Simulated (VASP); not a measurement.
# Free energy, extrapolated energy and pressure of fcc Ca against smearing width in r2SCAN: Fermi-Dirac and second-order Methfessel-Paxton

Broadening the occupations of a metal by half an electronvolt can lower its free energy by hundreds of meV per atom, yet leave the energy extrapolated to zero width almost where it was. How can both be true, and which of the two does the pressure follow?

**Problem.** For fcc Ca at fixed cell and on one k mesh, find how free energy, extrapolated energy and pressure drift with the width in the Fermi-Dirac and Methfessel-Paxton schemes, and estimate the missing free energy at 0.2 eV. All errors are counted from the Fermi-Dirac run at 0.01 eV, not from experiment or a converged mesh. The answer matters wherever small energy differences between metallic phases, or lattice constants obtained from computed pressures, are wanted.

## Calculations

One crystal without a Kohn-Sham gap, Ca (fcc) (known phase), at r2SCAN; single-point runs at fixed cell and atoms on one k mesh (7×7×7), only the smearing changed. Program: VASP 6.6.1, plane waves and PAW (data sets made for PBE of release 64), scalar-relativistic without spin-orbit coupling, no spin polarisation. Cutoff 400 eV; on the k meshes the divisions times the cell-vector length are 27 Å or more.

Notes on method and selection:

- For Gaussian or Fermi-Dirac smearing the free energy falls as σ² times the density of states at the Fermi level; Methfessel-Paxton schemes cancel the leading order.
- At the smallest widths the mesh is too coarse for the step in the occupations, so the reference carries its own sampling error.
- Runs that did not converge, have known faults or may not be shown are not listed, and runs on Ansatz's PAW sets soft_1 and soft_2 are kept to separate tables.

Columns:

- width (eV): smearing width SIGMA.
- iterations: electronic iterations.
- free-energy error (meV/atom): free energy per atom minus that of the run with Fermi-Dirac smearing of 0.01 eV.
- energy error (meV/atom): energy per atom, extrapolated to zero smearing as the program prints it, minus that of the run with Fermi-Dirac smearing of 0.01 eV.
- pressure error (GPa): pressure minus that of the run with Fermi-Dirac smearing of 0.01 eV, compression positive.
- smearing term (meV/atom): free energy minus the extrapolated energy, per atom.

Input lines of one member:

```
PREC = Accurate
ENCUT = 400
EDIFF = 1E-06
NELM = 100
ISMEAR = -1
SIGMA = 0.01
LREAL = .FALSE.
ALGO = Normal
METAGGA = R2SCAN
LASPH = .TRUE.
NBANDS = 11
LORBIT = 11
ISIF = 2
```

Command (options for logging and memory left out): `vasp_std`

## Table of results

```
member       scheme                           width (eV)  iterations  free-energy error (meV/atom)  energy error (meV/atom)  pressure error (GPa)  smearing term (meV/atom)
σ = 0.01 eV  Fermi-Dirac                      0.01        14          0.00                          0.00                     0.0000                0.00
σ = 0.05 eV  Fermi-Dirac                      0.05        17          −1.71                         1.46                     −0.0385               −3.17
σ = 0.1 eV   Fermi-Dirac                      0.10        16          −13.65                        3.15                     −0.0473               −16.80
σ = 0.2 eV   Fermi-Dirac                      0.20        15          ?                             ?                        ?                     ?
σ = 0.5 eV   Fermi-Dirac                      0.50        16          −437.68                       −1.25                    0.3338                −436.43
σ = 0.01 eV  Methfessel-Paxton, second order  0.01        14          0.00                          0.00                     −0.0007               0.00
σ = 0.05 eV  Methfessel-Paxton, second order  0.05        14          0.24                          0.14                     −0.0091               0.10
σ = 0.1 eV   Methfessel-Paxton, second order  0.10        15          0.69                          0.49                     −0.0484               0.19
σ = 0.2 eV   Methfessel-Paxton, second order  0.20        17          2.93                          1.58                     −0.0375               1.36
σ = 0.5 eV   Methfessel-Paxton, second order  0.50        16          1.18                          1.60                     −0.0767               −0.41
```

Cells marked ? are withheld until the estimate has been made.

free-energy error (meV/atom) against width (eV), members shown:

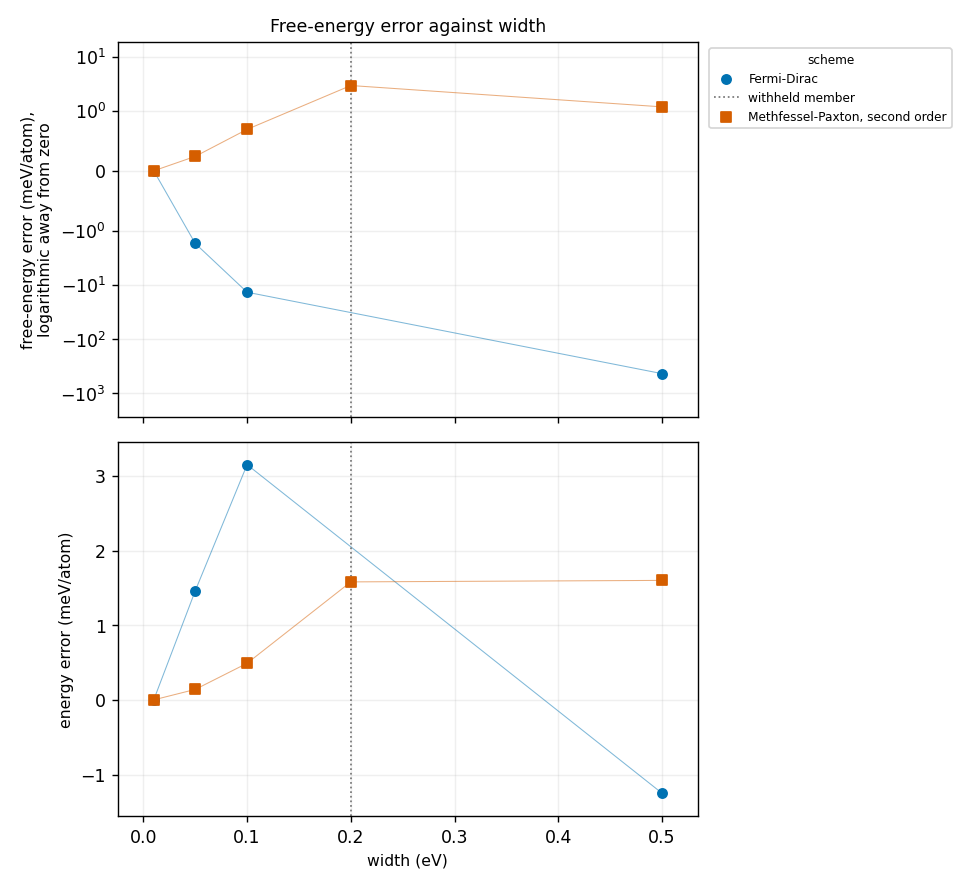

## Why the values move as they do

**Solution, first part.** Fermi-Dirac occupations carry an entropy. To leading order it lowers the free energy by (π²/6)·D·σ², with D the density of states at the Fermi level. The smearing term divided by σ² should then be constant. It is −16.80 / 0.10² = −1680 meV/eV² at 0.1 eV and −436.43 / 0.50² = −1746 meV/eV² at 0.5 eV, nearly the same. Taken in eV and divided by π²/6, the size of the first value gives a D of about 1.0 states per eV and atom, both spins together.

At 0.05 eV the quotient is only −3.17 / 0.05² = −1268 meV/eV², and at 0.01 eV the term vanishes to the printed digits. The mesh offers a discrete set of levels, and a very narrow step finds none to occupy partially. The Fermi level may then lie anywhere between the highest filled and the lowest empty sampled level. This can explain why the two schemes place it at clearly different energies at 0.01 eV while their energies and pressures almost agree. That agreement is therefore no sign of a converged mesh.

The extrapolation removes the quadratic term: at 0.5 eV the Fermi-Dirac error shrinks from −437.68 to −1.25 meV/atom. Methfessel-Paxton smearing cancels the leading order in the free energy itself, whose error stays within 2.93 meV/atom in the rows shown.

The pressure belongs to the free energy and gets no such extrapolation. With Fermi-Dirac smearing it is 0.3338 GPa too high at 0.5 eV, against −0.0767 GPa with Methfessel-Paxton. A positive shift is expected if D grows as the crystal expands, since the entropy then favours a larger volume. At 0.05 and 0.1 eV the Fermi-Dirac shifts are negative instead, and the Methfessel-Paxton shifts are not monotonic; coarse sampling could produce both. They set no bound on the pressure error, because a further converged run of the series gave a clearly more negative pressure than any row.

## Predicting the missing value

Plain estimates from the members shown:

- σ = 0.2 eV (Fermi-Dirac), straight-line interpolation between σ = 0.1 eV and σ = 0.5 eV: w = (0.20 − 0.10) / (0.50 − 0.10) = 0.250, so −13.65 + 0.250 × (−437.68 − (−13.65)) = −119.66 meV/atom
- σ = 0.2 eV (Fermi-Dirac), from its own Methfessel-Paxton, second order value plus the mean shift Fermi-Dirac − Methfessel-Paxton, second order over the other 4 members (−113.79, standard deviation 188): 2.93 − 113.79 = −110.86 meV/atom

**Solution, second part.** Both plain estimates miss the curvature. A straight line in σ cuts across a parabola and comes out far too negative, and the mean shift between schemes is dominated by the 0.5 eV row. The free energy should be followed in σ².

For Fermi-Dirac smearing F = E − σS and dF/dσ = −S, with S the entropy in units of k. The extrapolated energy is the mean of E and F, so the smearing term is −σS/2, and the local slope dF/d(σ²) = −S/(2σ) equals the smearing term divided by σ². At 0.1 eV this is −1680 meV/eV². The mean slope from 0.1 to 0.5 eV is (−437.68 + 13.65) / (0.25 − 0.01) = −1767 meV/eV². Taking the latter as the slope reached at 0.2 eV, the step from 0.1 eV has the average slope (−1680 − 1767) / 2 = −1723.5 meV/eV², and

−13.65 − 1723.5 × (0.04 − 0.01) = −65.4 meV/atom.

The same route can be tried on the 0.1 eV row, starting from 0.05 eV. The slopes are −1268 and (−437.68 + 1.71) / (0.50² − 0.05²) = −1761 meV/eV², with the average (−1268 − 1761) / 2 = −1514.5 meV/eV². The step in σ² is 0.10² − 0.05² = 0.0075 eV², which gives −1.71 − 1514.5 × 0.0075 = −13.07 meV/atom. The tabulated value is −13.65, a miss of 0.58.

One test is thin support for an error bar. Using the mean slope alone would give −13.65 − 1767 × 0.03 = −66.7 meV/atom, and the distance of 1.3 between the two results is taken as one standard deviation.

**Committed estimate, σ = 0.2 eV (Fermi-Dirac): free-energy error = −65.4 ± 1.3 meV/atom.**

## Result

```
member      scheme       width (eV)  iterations  free-energy error (meV/atom)  energy error (meV/atom)  pressure error (GPa)  smearing term (meV/atom)
σ = 0.2 eV  Fermi-Dirac  0.20        15          −64.80                        4.70                     0.0052                −69.50
```

```
member                    estimate                                    free-energy error (meV/atom)  computed  estimate − computed  miss in error bars
σ = 0.2 eV (Fermi-Dirac)  committed                                   −65.40                        −64.80    −0.60                0.5
σ = 0.2 eV (Fermi-Dirac)  interpolation                               −119.66                       −64.80    −54.86
σ = 0.2 eV (Fermi-Dirac)  shift from Methfessel-Paxton, second order  −110.86                       −64.80    −46.06
```

free-energy error (meV/atom) against width (eV):

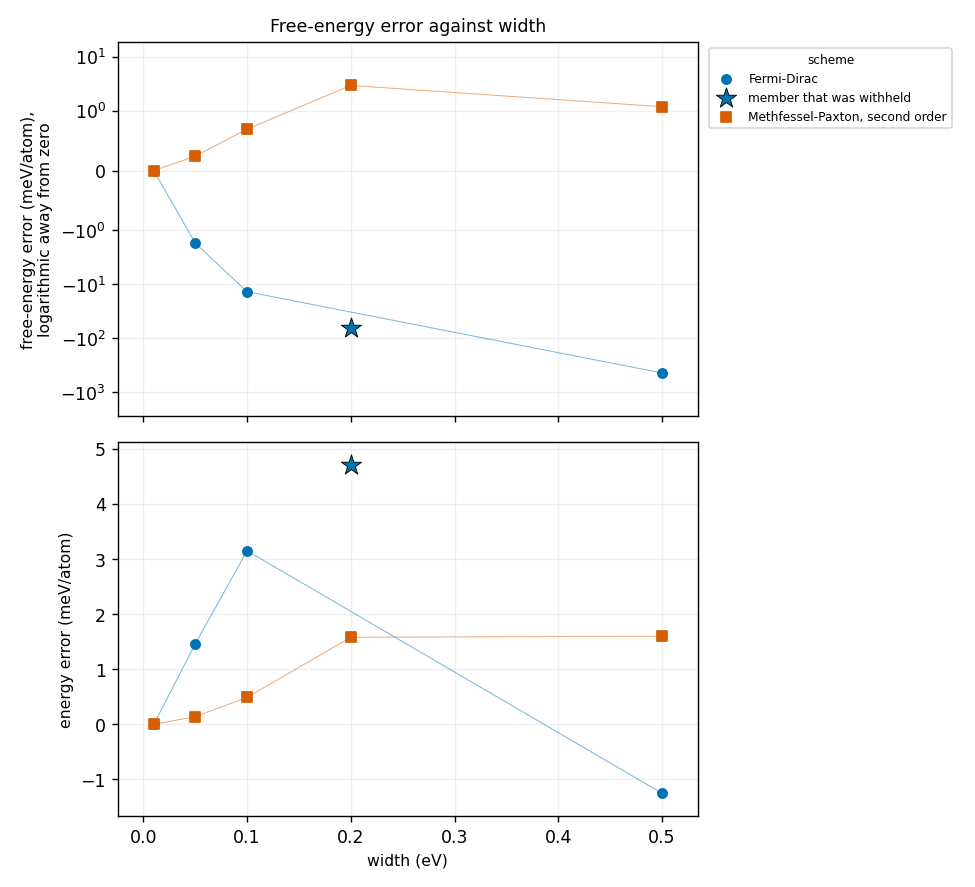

The estimate of −65.4 meV/atom lies 0.60 below the computed −64.80, about half its error bar. The straight line in σ missed by 54.86 and the shift from Methfessel-Paxton by 46.06 meV/atom, so following the free energy in σ² was the step that mattered.

The weaker step was to take the mean slope between 0.1 and 0.5 eV, −1767 meV/eV², as the slope at 0.2 eV. The new row gives −69.50 / 0.20² = −1738 meV/eV². With that value the same route leads to −13.65 − (1680 + 1738) / 2 × 0.03 = −64.9 meV/atom, so most of the miss came from this slope.

The entropy term thus stays close to quadratic from 0.1 to 0.5 eV. The pressure supports the same picture. It rises by (0.0052 + 0.0473) / 0.03 = 1.75 GPa/eV² from 0.1 to 0.2 eV and by (0.3338 − 0.0052) / 0.21 = 1.56 GPa/eV² from 0.2 to 0.5 eV, as expected if the density of states at the Fermi level grows on expansion.

## Where the trend breaks

The Fermi-Dirac row at 0.5 eV has by far the largest free-energy and pressure errors, but it follows the quadratic law and is no exception to it.

The row that does leave the law is Fermi-Dirac at 0.05 eV. The coefficient found at 0.2 eV would give a smearing term of −1738 × 0.05² = −4.3 meV/atom, and the run gives −3.17. The missing 1.2 meV/atom has the sign expected when too few sampled levels lie within the narrow step to be partially occupied.

In the extrapolated energy the new row itself stands out: its error of 4.70 meV/atom is the largest of that column, and at 0.5 eV the error has changed sign to −1.25. Extrapolation removes only the quadratic term, so higher powers of the width remain. A reference lying slightly too low through its coarse sampling would also contribute, since it would raise the errors of all wider runs together. How much each adds is left open.

## Conclusions

For Fermi-Dirac smearing of fcc Ca on this mesh, the smearing term is about −1700 meV/eV² times σ² from 0.1 to 0.5 eV. Following the slope in σ² reproduced two rows to about 0.6 meV/atom. The Methfessel-Paxton errors are small but follow no such law.

In practice, free energies from different Fermi-Dirac widths must not be subtracted. Going from 0.1 to 0.2 eV changes the free energy by −64.80 + 13.65 = −51.15 meV/atom (about −4.9 kJ/mol), but the extrapolated energy by only 4.70 − 3.15 = 1.55 meV/atom. A pressure needs a small width or Methfessel-Paxton smearing, together with a test of the k mesh.

Lattice vibrations are omitted. At room temperature they add roughly 80 meV/atom to the energy (3kT), far more than the whole Methfessel-Paxton spread, and they shift the pressure as well.

[Logs are printed without paths, hosts, clocks, repeated set-up lines and the standing remarks that a program may print on its own settings, such as how far it seeks lower states.]
